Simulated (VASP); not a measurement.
# Pressure and energy of hcp Ti (P6_3/mmc) against volume in LDA at a 400 eV cutoff

At the volume where the fitted energy of Ti is lowest, the stress tensor still reports a tension of about 1 GPa. A cell at its energy minimum should need no external pressure, so one of the two quantities carries an error. This matters to anyone who builds strained films or contacts from a relaxed cell, because the choice of zero shifts every pressure quoted afterwards. We follow seven cells, scaled evenly from −6.72 to +5.19 % in volume. Volume changes are measured from the fitted minimum at 16.10 Å³ per atom, energies from the lowest row, and positive pressure means compression.

## Method

A cell from a diffraction database, relaxed at this level and then scaled evenly, fractional positions kept. VASP 6.6.1, plane waves with PAW, LDA, cutoff 400 eV, k mesh 8×8×4, no spin polarisation, no spin-orbit coupling, static lattice. A Birch-Murnaghan fit to the energies has its minimum at 16.10 Å³ per atom.

Notes on method and selection:

- The pressure is that of a finite plane-wave basis, so it need not vanish exactly at the minimum of the energy.
- Only series whose fit has its minimum inside the range and an error under 0.5 meV per atom are shown.
- Where rows or columns differ in functional or spin-orbit coupling, non-spherical gradient terms in the PAW spheres (LASPH) may be on in some and off in others.
- Runs that did not converge, have known faults or may not be shown are not listed, and runs on Ansatz's PAW sets soft_1 and soft_2 are kept to separate tables.

Columns:

- volume change (%): volume relative to the fitted equilibrium volume.
- pressure (GPa): pressure from the stress tensor (positive: compressed).
- energy (meV/atom): energy per atom above the lowest point of the series.

Input lines of one member:

```
PREC = Accurate
ENCUT = 400
EDIFF = 1E-06
NELM = 100
ISMEAR = 1
SIGMA = 0.2
LREAL = .FALSE.
ALGO = Normal
GGA = CA
NBANDS = 18
LASPH = .TRUE.
LORBIT = 11
KPAR = 2
ISIF = 2
```

Command (options for logging and memory left out): `mpirun -np 2 vasp_std`

## Data

```
member    volume change (%)  pressure (GPa)  energy (meV/atom)
15.02 Å³  −6.72              9.07            32.5
15.34 Å³  −4.74              5.78            15.6
15.66 Å³  −2.75              2.77            4.8
15.97 Å³  −0.77              0.03            0.0
16.29 Å³  1.22               −2.48           0.6
16.61 Å³  3.20               −4.75           6.2
16.93 Å³  5.19               −6.83           16.2
```

pressure (GPa) against volume change (%):

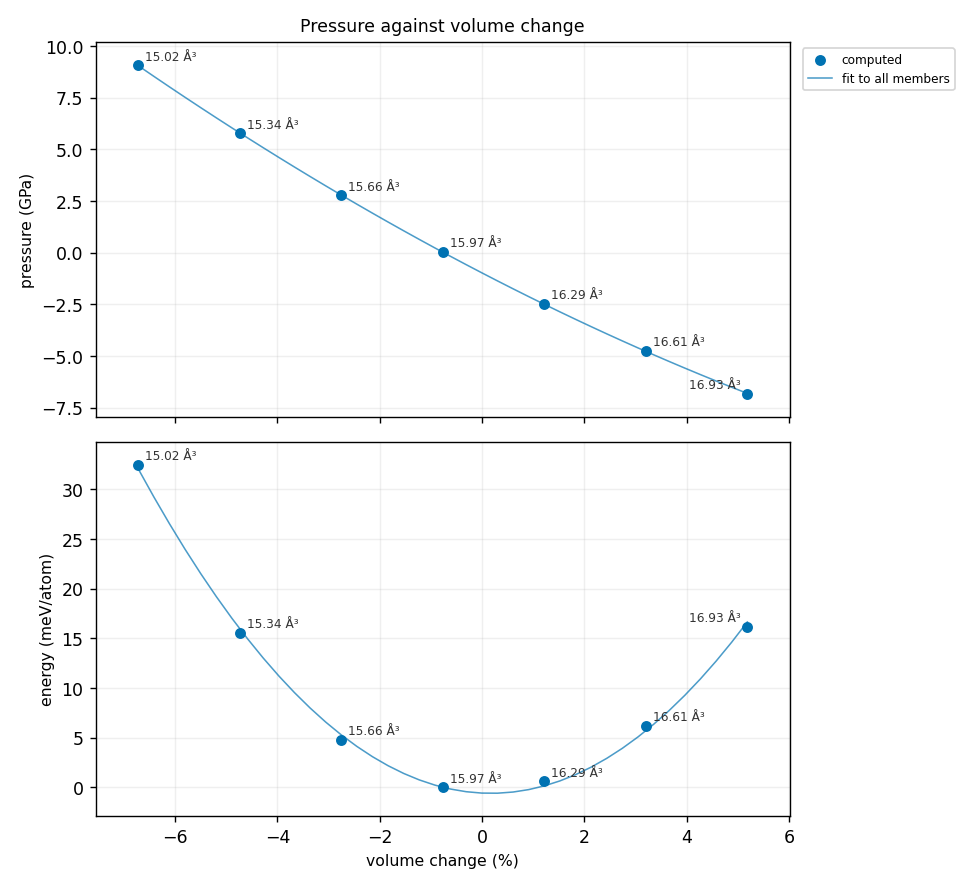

Least-squares fits to the whole series, with x = volume change (%); R² and errors in the fitted variable (y, or ln y where the fit is in ln y):

```
y                  members  fit                                    R²    rms residual  leave-one-out rms  the same for the mean of the others
pressure (GPa)     7        y = −0.97794 − 1.2842 x + 0.030927 x²  1.00  0.019         0.052              6.2
energy (meV/atom)  7        y = −0.5707 − 0.2409 x + 0.6868 x²     1.00  0.43          1.1                12
```

## Why the values move as they do

The pressure falls at every step, from 9.07 GPa in the smallest cell to −6.83 GPa in the largest, while the energy passes through a minimum. The fall is steeper on the compressed side. Between the two smallest cells it is (9.07 − 5.78) / (6.72 − 4.74) = 1.66 GPa per percent of volume, and between the two largest (6.83 − 4.75) / (5.19 − 3.20) = 1.05 GPa per percent. The general reason is that two terms compete. Bonding through the d electrons pulls the atoms together, while the kinetic energy of the electrons and the overlap of the ion cores push them apart. The repulsion grows faster as the atoms approach, so the metal stiffens under compression and softens under expansion.

The energies give a second route to the pressure, P = −dE/dV, with 1 meV/Å³ = 0.1602 GPa. For the 15.97 Å³ cell we take the slope between its two neighbours. Their volumes differ by 1.22 + 2.75 = 3.97 % of 16.10 Å³, or 3.97 × 16.10 / 100 = 0.639 Å³, which gives (4.8 − 0.6) / 0.639 × 0.1602 = 1.05 GPa. The stress tensor gives 0.03 GPa, lower by 1.02 GPa.

The gap has the sign of the Pulay stress of a finite plane-wave basis, the usual cause of such an offset, though the table holds only one cutoff and so cannot prove it. The stress is a derivative taken with a fixed set of plane waves. When the cell expands, that set reaches a lower effective cutoff and the energy rises artificially, which appears as an inward pull. The energies are less affected, because each volume has its own set of waves up to 400 eV.

The same calculation puts the gap at (32.5 − 4.8) / 0.639 × 0.1602 − 5.78 = 1.16 GPa for the 15.34 Å³ cell and at 4.75 − (16.2 − 0.6) / 0.639 × 0.1602 = 0.84 GPa for the 16.61 Å³ cell. Dividing a constant basis error by the smaller volume would raise it by only about 8 % between these two, so the cause of the remaining drift is left open.

## Outliers

Largest departures from the fit to the whole series:

```
member    pressure (GPa)  fit    computed − fit  in rms residuals
15.34 Å³  5.78            5.80   −0.02           1.3
15.02 Å³  9.07            9.05   +0.02           1.1
16.61 Å³  −4.75           −4.77  +0.02           1.1
16.93 Å³  −6.83           −6.81  −0.02           1.1
```

No cell stands apart in pressure. The largest departures from the quadratic fit are 0.02 GPa, in a series that spans 9.07 + 6.83 = 15.90 GPa, and they are too close to the printed rounding to deserve a cause.

The energies depart from their quadratic fit more visibly. At 16.61 Å³ the fit gives −0.5707 − 0.2409 × 3.20 + 0.6868 × 3.20² = 5.7 meV per atom, against 6.2 in the table. At 16.93 Å³ it is too high by 0.5 meV, and at 15.02 Å³ too low by 0.4 meV. From the smallest cell to the largest, the computed energy lies above, below, below, almost on, above, above and below the fit. That ordered pattern is what a missing cubic term leaves behind: a parabola is symmetric about its minimum, whereas the real curve rises faster on compression. The misses therefore belong to the form of the fit, and a Birch-Murnaghan curve is the better choice for interpolating energies.

## Short exercises

**Which cell represents Ti under about 4 GPa of compression?**

Read directly, the pressure column places 4 GPa between the 15.66 and 15.34 Å³ cells. The energy slope at 15.66 Å³, taken between its neighbours, is (15.6 − 0.0) / 0.639 × 0.1602 = 3.9 GPa. The 15.66 Å³ cell is therefore the one to use, although its stress tensor reports only 2.77 GPa.

**Is a cell relaxed to zero stress at 400 eV good enough as a starting structure?**

The 15.97 Å³ cell has almost no reported stress and lies 0.77 % below the fitted minimum in volume. Its edges are short by about 0.77 / 3 = 0.26 %. The energy cost is about 0.6868 × 0.77² = 0.4 meV per atom. That is harmless for most energy comparisons, but in a study of strains of a few tenths of a percent the offset is as large as the effect. A higher cutoff, or a fit to energies, removes most of it.

**What bulk modulus follows from the table?**

At the fitted minimum the pressure changes by −1.2842 GPa per percent, so B = 100 × 1.2842 = 128 GPa. The basis error drifts by (1.16 − 0.84) / (4.74 + 3.20) = 0.04 GPa per percent, and correcting for it adds about 4 GPa, giving roughly 128 + 4 = 132 GPa.

## Conclusions and limits

Between −6.72 and +5.19 % in volume, the reported pressure is smooth but too low by roughly 1 GPa. Pressure differences between nearby cells are much more reliable than absolute values.

LDA generally binds transition metals too strongly, so the equilibrium volume is expected to be too small and the bulk modulus too high. The static lattice errs in the same direction, since zero-point and thermal motion expand and soften the metal. Even scaling also keeps the axial ratio fixed, which, away from the relaxed volume, leaves a stress of larger magnitude along c than in the basal plane. Letting the ratio relax would lower the energies away from the minimum and soften the response slightly.

The curve describes the hcp phase only. Titanium is known to transform to the ω phase under pressures of several GPa, so the most compressed cells need not be the stable form.

[Logs are printed without paths, hosts, clocks, repeated set-up lines and the standing remarks that a program may print on its own settings, such as how far it seeks lower states.]
